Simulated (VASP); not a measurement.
# Pressure and energy against strain for wurtzite ZnS at the SCAN level: bulk modulus and its pressure derivative

In wurtzite ZnS each zinc atom is bonded to four sulfur atoms and each sulfur to four zinc atoms, by bonds that are partly covalent and partly ionic. The members of this series are one crystal at seven volumes, so that only the bond length changes. The question is which bulk modulus B0 and pressure derivative B0′ follow from the stress tensor, and which from the energy. Both quantities matter for strained films and for optical windows and phosphors under load, where they convert a stress into a change of volume. Strain is measured from the volume V0 fitted to the energies, with compression positive; energy is counted per atom from the lowest point. All values are for a static lattice in SCAN.

## Set-up

One crystal, ZnS (wurtzite) (known phase), at SCAN: single-point runs on uniformly scaled copies of a cell relaxed at SCAN; symmetry leaves the fractional positions and the cell shape free, held here. Program: VASP 6.6.1, plane waves and PAW (data sets made for PBE of release 64), scalar-relativistic without spin-orbit coupling, no spin polarisation. Cutoff 400 eV; on the k meshes the divisions times the cell-vector length are 29 Å or more. Occupations: Gaussian smearing of 0.05 eV.

Notes on method and selection:

- Third-order Birch-Murnaghan: P = 3·B0·f·(1 + 2f)^(5/2)·[1 + (3/2)(B0′ − 4)·f]. The fit to the energies of these runs gives B0 = 83.1 GPa and B0′ = 2.54.
- Static lattice. The pressure from the stress tensor and the slope of the energy need not agree exactly at a finite cutoff and mesh.
- With the fractional positions and the cell shape held the modulus is an upper bound.
- Semilocal functionals put Kohn-Sham gaps below measured gaps.
- A measured value is attached only where its sources agree among themselves; tables made before the last selection also left out values far from the computed one, as likely another phase or mode.
- Series whose points a third-order Birch-Murnaghan form does not fit, or whose B0′ lies outside 2 to 8, were left out.
- Crystals whose pressure at the fitted V0 departs from zero by more than 0.6 % of B0 plus 0.1 GPa, and layered compounds, were left out.
- Runs that did not converge, have known faults or may not be shown are not listed, and runs on Ansatz's PAW sets soft_1 and soft_2 are kept to separate tables.

Columns:

- Eulerian strain: Eulerian strain f = ½[(V0/V)^(2/3) − 1] with the fitted V0 = 19.4234 Å³ per atom, compression positive.
- fitted bulk modulus (GPa): bulk modulus at that volume from the third-order Birch-Murnaghan fit to the energies.
- volume (Å³): volume per atom.
- pressure (GPa): pressure from the stress tensor, compression positive.
- energy (meV/atom): energy per atom above the lowest point, extrapolated to zero smearing.
- gap (eV): Kohn-Sham gap on the k mesh.

Input lines of one member:

```
PREC = Accurate
ENCUT = 400
EDIFF = 1E-06
NELM = 100
ISMEAR = 0
SIGMA = 0.05
LREAL = .FALSE.
ALGO = Normal
METAGGA = SCAN
LASPH = .TRUE.
NBANDS = 24
LORBIT = 11
ISIF = 2
```

Command (options for logging and memory left out): `vasp_std`

## Data

| member | Eulerian strain | fitted bulk modulus (GPa) | volume (Å³) | pressure (GPa) | energy (meV/atom) | gap (eV) |
| --- | --- | --- | --- | --- | --- | --- |
| V = 20.535 Å³ | −0.01822 | 71.7 | 20.5353 | −4.43 | 15.35 | 2.490 |
| V = 20.148 Å³ | −0.01206 | 75.5 | 20.1478 | −3.32 | 6.61 | 2.581 |
| V = 19.760 Å³ | −0.00570 | 79.5 | 19.7604 | −1.63 | 1.22 | 2.674 |
| V = 19.373 Å³ | 0.00087 | 83.7 | 19.3729 | −0.05 | 0.00 | 2.771 |
| V = 18.985 Å³ | 0.00766 | 88.0 | 18.9854 | 1.96 | 2.71 | 2.868 |
| V = 18.598 Å³ | 0.01469 | ? | ? | ? | ? | ? |
| V = 18.211 Å³ | 0.02196 | 97.0 | 18.2105 | 5.52 | 21.13 | 3.073 |

Cells marked ? are withheld until the estimate has been made.

Least-squares fits to the members shown, with x = Eulerian strain; R² and errors in the fitted variable (y, or ln y where the fit is in ln y):

| y | members | fit | R² | rms residual | leave-one-out rms | the same for the mean of the others |
| --- | --- | --- | --- | --- | --- | --- |
| pressure (GPa) | 6 | y = −0.1974 + 250.5 x + 579.7 x² | 1.00 | 0.13 | 0.60 | 4.0 |
| energy (meV/atom) | 6 | y = −0.05991 − 18.20 x + 44960 x² | 1.00 | 0.18 | 0.85 | 9.4 |

## What drives the series

Pressure rises with compression in every shown row, from −4.43 GPa at the largest volume to 5.52 GPa at the smallest. The energy has its lowest shown value at 19.373 Å³ and rises on both sides. Stretched bonds pull the crystal inward, while shortened bonds push it outward because the repulsion between overlapping closed shells grows steeply. That growth also makes the crystal stiffer: the fitted modulus goes from 71.7 to 97.0 GPa across the series.

At small strain the Birch-Murnaghan pressure is 3·B0·f, so the linear coefficient of the pressure fit gives B0 = 250.5 / 3 = 83.5 GPa. The energies give 83.1 GPa. The two routes agree closely on the modulus, which is an upper bound because the fractional positions and the cell shape were held.

The derivative is much less certain. Expanding the same form to second order, the ratio of the quadratic to the linear coefficient is 5 + (3/2)(B0′ − 4). With 579.7 / 250.5 = 2.31 this gives B0′ = 4 + (2.31 − 5) / 1.5 = 2.2, against 2.54 from the energies. Both are low for a tetrahedral semiconductor, where values of roughly 4 to 5 are usual. At f = 0.02 a change of one unit in B0′ moves the pressure by only 3 × 83.1 × 1.5 × 0.02² = 0.15 GPa, and the computed pressures are not that smooth. Over the first four equal steps of volume they rise by −3.32 + 4.43 = 1.11, −1.63 + 3.32 = 1.69, −0.05 + 1.63 = 1.58 and 1.96 + 0.05 = 2.01 GPa, where a smooth equation of state would give steadily growing steps.

The gap, by contrast, widens evenly, by 0.09 to 0.10 eV in each of these steps, which gives no sign of an electronic change behind the uneven pressures. The forces left along the c axis also vary irregularly and change sign. A numerical origin is therefore likely, such as plane-wave sets and real-space grids that change abruptly with cell size, the latter a known sensitivity of SCAN.

## Prediction

Plain estimates from the members shown:

- V = 18.598 Å³, fit at x = 0.01469: 3.61 GPa
- V = 18.598 Å³, straight-line interpolation between V = 18.985 Å³ and V = 18.211 Å³: w = (0.01469 − 0.00766) / (0.02196 − 0.00766) = 0.492, so 1.96 + 0.492 × (5.52 − 1.96) = 3.71 GPa

Straight-line interpolation rests on two pressures and takes over the irregularity of both. The Birch-Murnaghan curve from the energies, corrected for its mean offset from the stress tensor, uses all six shown pressures and is preferred here. The energy fit also includes the energy at the withheld volume, though not its pressure.

With (3/2)(2.54 − 4) = −2.19, the curve gives at f = 0.01469

3 × 83.1 × 0.01469 × (1 + 2 × 0.01469)^(5/2) × (1 − 2.19 × 0.01469) = 3.81 GPa.

For the shown members, from the largest volume to the smallest, the stress-tensor pressure minus this curve is −0.13, −0.42, −0.23, −0.27, 0.01 and −0.28 GPa, with a mean of −0.22 GPa. A negative offset is what a finite cutoff produces: the stress tensor refers to a fixed set of plane waves, whereas the energies are compared at a fixed cutoff. The estimate is then 3.81 − 0.22 = 3.59 GPa.

As a trial, the member at 18.211 Å³ has 3 × 83.1 × 0.02196 × (1 + 2 × 0.02196)^(5/2) × (1 − 2.19 × 0.02196) = 5.80 GPa on the curve, and the mean offset of the other five is −0.21 GPa. This gives 5.80 − 0.21 = 5.59 GPa, against 5.52 GPa in the table. Repeating the trial for each shown member in turn gives a root-mean-square miss of 0.16 GPa, which is taken as the standard deviation.

**Committed estimate, V = 18.598 Å³: pressure = 3.59 ± 0.16 GPa.**

## Outcome

| member | Eulerian strain | fitted bulk modulus (GPa) | volume (Å³) | pressure (GPa) | energy (meV/atom) | gap (eV) |
| --- | --- | --- | --- | --- | --- | --- |
| V = 18.598 Å³ | 0.01469 | 92.4 | 18.5980 | 3.40 | 9.21 | 2.968 |

| member | estimate | pressure (GPa) | computed | estimate − computed | miss in error bars |
| --- | --- | --- | --- | --- | --- |
| V = 18.598 Å³ | committed | 3.59 | 3.40 | +0.19 | 1.2 |
| V = 18.598 Å³ | fit | 3.61 | 3.40 | +0.21 |  |
| V = 18.598 Å³ | interpolation | 3.71 | 3.40 | +0.31 |  |

pressure (GPa) against Eulerian strain:

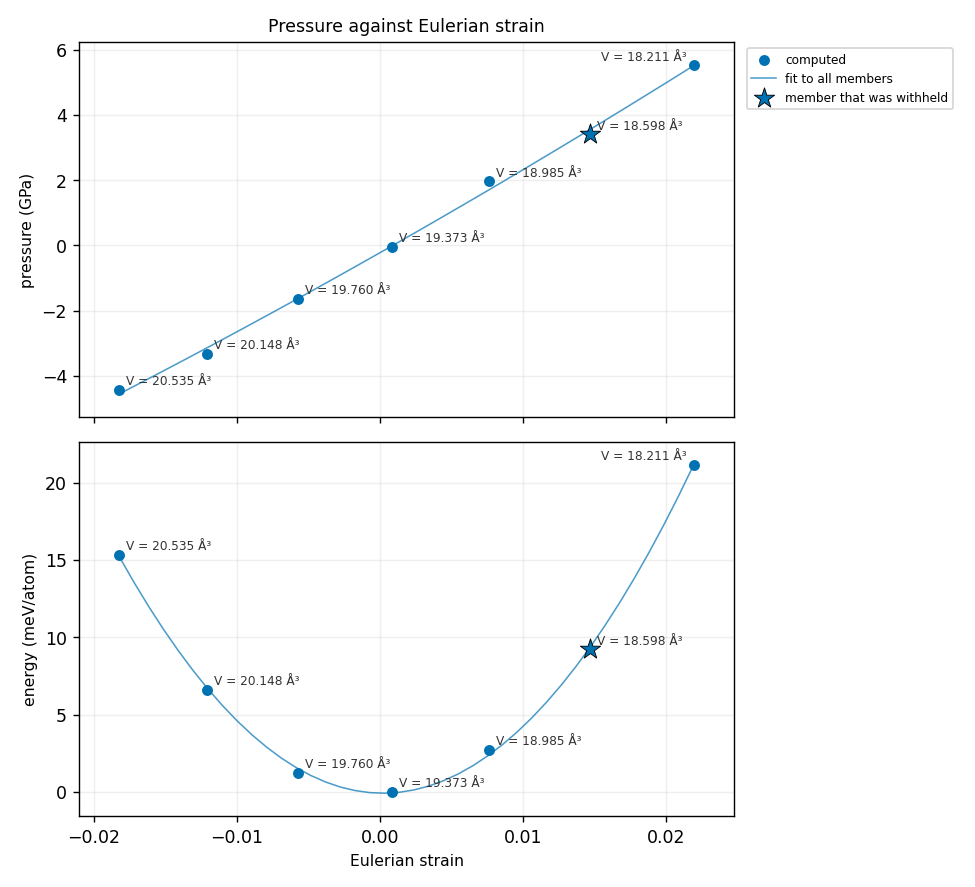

The computed pressure is 3.40 GPa. The estimate of 3.59 ± 0.16 GPa is too high by 0.19 GPa and falls just outside its error bar. It beats the interpolation, which is 0.31 GPa too high, but its lead of 0.02 GPa over the quadratic fit means nothing.

The sign of the correction held: the stress tensor again gives less than the Birch-Murnaghan curve from the energies. Its assumed constancy failed. The offset here is 3.40 − 3.81 = −0.41 GPa, nearly twice the mean of −0.22 GPa that was used.

The energies of the two neighbours give a check that needs no fitted curve. With 1 meV/Å³ = 0.1602 GPa, their slope is (21.13 − 2.71) / (18.9854 − 18.2105) × 0.1602 = 3.81 GPa, the same as the curve. The shortfall therefore lies in the stress tensor at this volume and not in the form of the equation of state. This supports a numerical origin of the uneven pressures.

## Exceptions

Least-squares fits to the whole series, with x = Eulerian strain; R² and errors in the fitted variable (y, or ln y where the fit is in ln y):

| y | members | fit | R² | rms residual | leave-one-out rms | the same for the mean of the others |
| --- | --- | --- | --- | --- | --- | --- |
| pressure (GPa) | 7 | y = −0.2271 + 248.2 x + 596.7 x² | 1.00 | 0.14 | 0.26 | 3.9 |
| energy (meV/atom) | 7 | y = −0.08355 − 20.01 x + 44970 x² | 1.00 | 0.18 | 0.31 | 8.5 |

Largest departures from the fit to the whole series:

| member | pressure (GPa) | fit | computed − fit | in rms residuals |
| --- | --- | --- | --- | --- |
| V = 18.985 Å³ | 1.96 | 1.71 | +0.25 | 1.8 |
| V = 20.148 Å³ | −3.32 | −3.13 | −0.19 | 1.3 |
| V = 18.598 Å³ | 3.40 | 3.55 | −0.15 | 1.1 |
| V = 20.535 Å³ | −4.43 | −4.55 | +0.12 | 0.9 |

No member stands far apart. The largest departure from the fit, +0.25 GPa at 18.985 Å³, is 1.8 rms residuals; next come −0.19 GPa at 20.148 Å³ and −0.15 GPa at 18.598 Å³.

The member at 18.985 Å³ lies high because the negative offset of the stress tensor, present in every other row, is absent there: its pressure agrees with the energy curve to 0.01 GPa. The other two have the largest offsets, −0.42 and −0.41 GPa. Such changes from one volume to the next fit a plane-wave set and a real-space grid that change in jumps as the cell is scaled. The held cell shape cannot cause the offsets: under uniform scaling at fixed fractional positions the mean stress is the slope of the energy, whatever the shape.

## Conclusions and limits

Between strains of −0.018 and 0.022 the seven pressures give B0 = 248.2 / 3 = 82.7 GPa and B0′ = 4 + (596.7 / 248.2 − 5) / 1.5 = 2.3, against 83.1 GPa and 2.54 from the energies. The scatter of the pressures leaves a standard error of roughly 2 GPa on B0 and roughly 1 on B0′. The energies also fix B0′ only weakly: at f = 0.02 one unit of it changes the energy by 4.5 × 83.1 × 19.42 × 0.02³ / 0.1602 = 0.36 meV/atom, only twice the rms residual of the quadratic energy fit. The modulus is thus usable, while the low derivative should not be read as a property of ZnS.

A further volume within this range can be estimated to about 0.26 GPa, the leave-one-out error of the fit. In practice, 1 GPa reduces the volume by about 1 / 83.1 = 1.2 %, or each length by 0.4 %.

No omitted effect approaches the 10 GPa range of the table. Lattice vibrations, however, would add roughly 0.5 GPa of outward pressure at room temperature, more than the scatter about the fit.

[Logs are printed without paths, hosts, clocks, repeated set-up lines and the standing remarks that a program may print on its own settings, such as how far it seeks lower states.]
